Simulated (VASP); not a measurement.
# Mo (Im-3m) under biaxial strain in the (110) plane: normal strain, stress, strain energy and elastic moduli with r2SCAN

Calculated here is the response of a molybdenum crystal to equal strain along both directions of its (110) plane, from −2 % to +2 %, with the normal direction free to relax. This is the situation of a (110) film held by a substrate, and it decides how much stress and energy such a film stores.

Strains are measured from the crystal relaxed with r2SCAN, tension is positive, and energies are per atom above that crystal. The problem is to find the laws that link normal strain, stress and energy to the imposed strain, to extract the elastic moduli they contain, and to establish the strain at which constant moduli cease to describe the rows.

## Set-up

The start is an entry of the ASE's table of reference states database. The crystal was relaxed with r2SCAN. Equal strain is imposed in the (110) plane; the strain along the normal is adjusted until the normal stress vanishes, and the atoms are relaxed with r2SCAN. VASP 6.6.1, plane waves with PAW, cutoff 450 eV, no spin polarisation, no spin-orbit coupling, k mesh 26×26×26, static lattice. The same in all rows: band gap on the k mesh at r2SCAN: 0.000 eV.

Notes on method and selection:

- Runs that did not converge, have known faults or may not be shown are not listed, and runs on Ansatz's PAW sets soft_1 and soft_2 are kept to separate tables.

Columns:

- strain (%): strain in the plane (tension positive).
- normal strain (%): strain along the normal.
- stress (GPa): mean of the two normal stresses in the plane, tension positive.
- strain energy (meV/atom): energy per atom above the relaxed crystal.

## Computed values

```
member  strain (%)  normal strain (%)  stress (GPa)  strain energy (meV/atom)
−2 %    −2.0        1.765              −10.28        20.39
−1.5 %  −1.5        1.307              −7.59         11.49
−1 %    −1.0        0.856              −5.01         5.13
−0.5 %  −0.5        0.424              −2.47         1.27
0 %     0.0         0.005              −0.01         −0.09
+0.5 %  0.5         −0.416             2.32          0.95
+1 %    1.0         −0.846             4.50          4.26
+1.5 %  1.5         −1.282             6.53          9.65
+2 %    2.0         −1.721             8.42          16.95
```

normal strain (%) against strain (%):

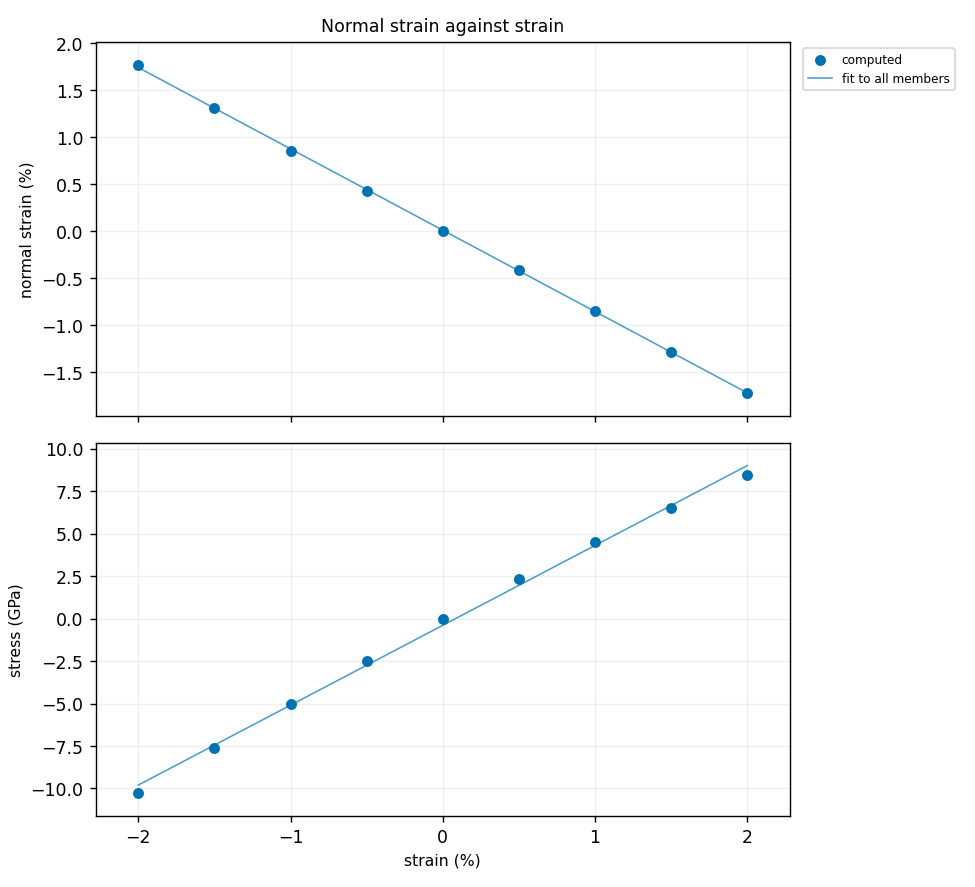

Least-squares fits to the whole series, with x = strain (%); R² and errors in the fitted variable (y, or ln y where the fit is in ln y):

```
y                  members  fit                     R²    rms residual  leave-one-out rms  the same for the mean of the others
normal strain (%)  9        y = 0.01022 − 0.8652 x  1.00  0.013         0.018              1.3
stress (GPa)       9        y = −0.3989 + 4.699 x   1.00  0.34          0.48               6.8
```

## The trend and its physics

The crystal thins when stretched and thickens when compressed, by roughly 0.85 of the imposed strain. The stress follows the sign of the strain, and the energy rises on both sides, more steeply in compression.

Linear elasticity of a cubic crystal gives the simplest model. It assumes constant moduli, zero normal stress and a fixed volume V per atom. Let e be the strain in the plane, n the normal strain, B the bulk modulus and L the modulus for stretching along [110] with the sides held.

1. The deformation is a uniform strain e in all directions plus an extra strain n − e along the normal. The first part puts a stress 3Be on every face, the second adds L(n − e) on the normal face.

2. Zero normal stress requires 3Be + L(n − e) = 0. Hence n = −r e, with r = 3B/L − 1.

3. In a cubic crystal the three normal stresses add up to 3B times the volume strain, 3B(2e + n). One of the three is zero, so the mean of the two in the plane is s = M e, with M = (3/2) B (2 − r).

4. Both stresses in the plane do work, dU = 2V s de, so the strain energy is U = V M e².

The three parameters are r, M and V. The first two yield two moduli:

B = 2M / [3(2 − r)] and L = 3B / (1 + r).

In terms of the cubic constants, 3B = C₁₁ + 2C₁₂ and 2L = C₁₁ + C₁₂ + 2C₄₄. Two combinations do not fix three constants. The missing one could be had from the difference between the two stresses in the plane. The stress along the cube axis is larger in magnitude than that along the face diagonal, but only their mean is tabled.

## Fixing and testing the model

The parameters are fixed on the rows −1 % and +1 %, whose average cancels terms even in strain for n and s, and odd in strain for U. Energies are counted from the 0 % row, at −0.09 meV.

- r = (0.856 + 0.846) / 2 = 0.851
- M = (5.01 + 4.50) / 2 = 4.755 GPa per %, or 4.755 × 100 = 475.5 GPa
- V M = (5.13 + 4.26) / 2 + 0.09 = 4.785 meV per %²
- V = 4.785 / 4.755 = 1.006 meV per GPa and %, roughly 16 Å³ per atom

The moduli follow:

- B = 2 × 475.5 / (3 × (2 − 0.851)) = 276 GPa
- L = 3 × 276 / (1 + 0.851) = 447 GPa

Four other rows test the model. The energy estimates include the −0.09 meV, so that they compare directly with the table.

**−2 %**
- n = 0.851 × 2.0 = 1.702 %; table 1.765
- s = −4.755 × 2.0 = −9.51 GPa; table −10.28
- U = 4.785 × 4.0 − 0.09 = 19.05 meV; table 20.39

**−0.5 %**
- n = 0.851 × 0.5 = 0.426 %; table 0.424
- s = −4.755 × 0.5 = −2.38 GPa; table −2.47
- U = 4.785 × 0.5 × 0.5 − 0.09 = 1.11 meV; table 1.27

**+0.5 %**
- n = −0.426 %; table −0.416
- s = 2.38 GPa; table 2.32
- U = 1.11 meV; table 0.95

**+2 %**
- n = −1.702 %; table −1.721
- s = 9.51 GPa; table 8.42
- U = 19.05 meV; table 16.95

## Where the trend breaks

Largest departures from the fit to the whole series:

```
member  normal strain (%)  fit     computed − fit  in rms residuals
−2 %    1.765              1.741   +0.024          1.9
−1 %    0.856              0.875   −0.019          1.5
−0.5 %  0.424              0.443   −0.019          1.5
+1 %    −0.846             −0.855  +0.009          0.7
```

The linear stress is too high in every row away from zero strain: the computed value lies below it by 0.06 to 0.09 GPa at ±0.5 %, by 10.28 − 9.51 = 0.77 GPa at −2 % and by 9.51 − 8.42 = 1.09 GPa at +2 %. The assumption of constant moduli fails, because the lattice stiffens when compressed and softens when stretched. The ±1 % rows give a quadratic term with the coefficient (4.50 − 5.01) / 2 = −0.255 GPa per %². It changes the estimate at −2 % to −9.51 − 0.255 × 4.0 = −10.53 GPa and that at +2 % to 9.51 − 0.255 × 4.0 = 8.49 GPa, both close to the table. The intercept of −0.3989 GPa in the printed straight-line fit is this curvature, not a residual stress; the unstrained row has −0.01 GPa.

The energies show a second, numerical departure. Between the ±0.5 % rows their slope is (0.95 − 1.27) / 1.0 = −0.32 meV per %, which by step 4 would mean a mean stress in the plane of −0.32 / (2 × 1.006) = −0.16 GPa at zero strain, where the table has −0.01 GPa. Elastic softening accounts for only a small part of this slope. The likely cause of the rest is the finite plane-wave cutoff: a larger cell receives more plane waves, which lowers its energy slightly. The −0.09 meV of the unstrained row is a basis offset of the same kind, not a more stable crystal.

## Summary

A constant ratio of normal to imposed strain serves over the whole range, within about 4 %. Constant moduli give the stress within about 4 % at ±0.5 % strain and 6 % at ±1 %, but overshoot by 13 % at +2 %. If an error of 5 % in the stress is tolerated, they hold at ±0.5 % and fail from ±1 % on. The bulk modulus is the firmest result: the ±0.5 % and the ±2 % rows, treated in the same way, agree with 276 GPa to within 1 GPa. Averaging tension and compression removes the leading softening, and the small drifts that remain in M and in 2 − r nearly cancel in their ratio, which sets B.

The main omission is plastic flow. Dislocations let ordinary bulk metals of this kind yield at roughly 1 GPa or less, so the larger stresses in the table apply to a defect-free crystal or, at best, a very thin film.

[Logs are printed without paths, hosts, clocks, repeated set-up lines and the standing remarks that a program may print on its own settings, such as how far it seeks lower states.]
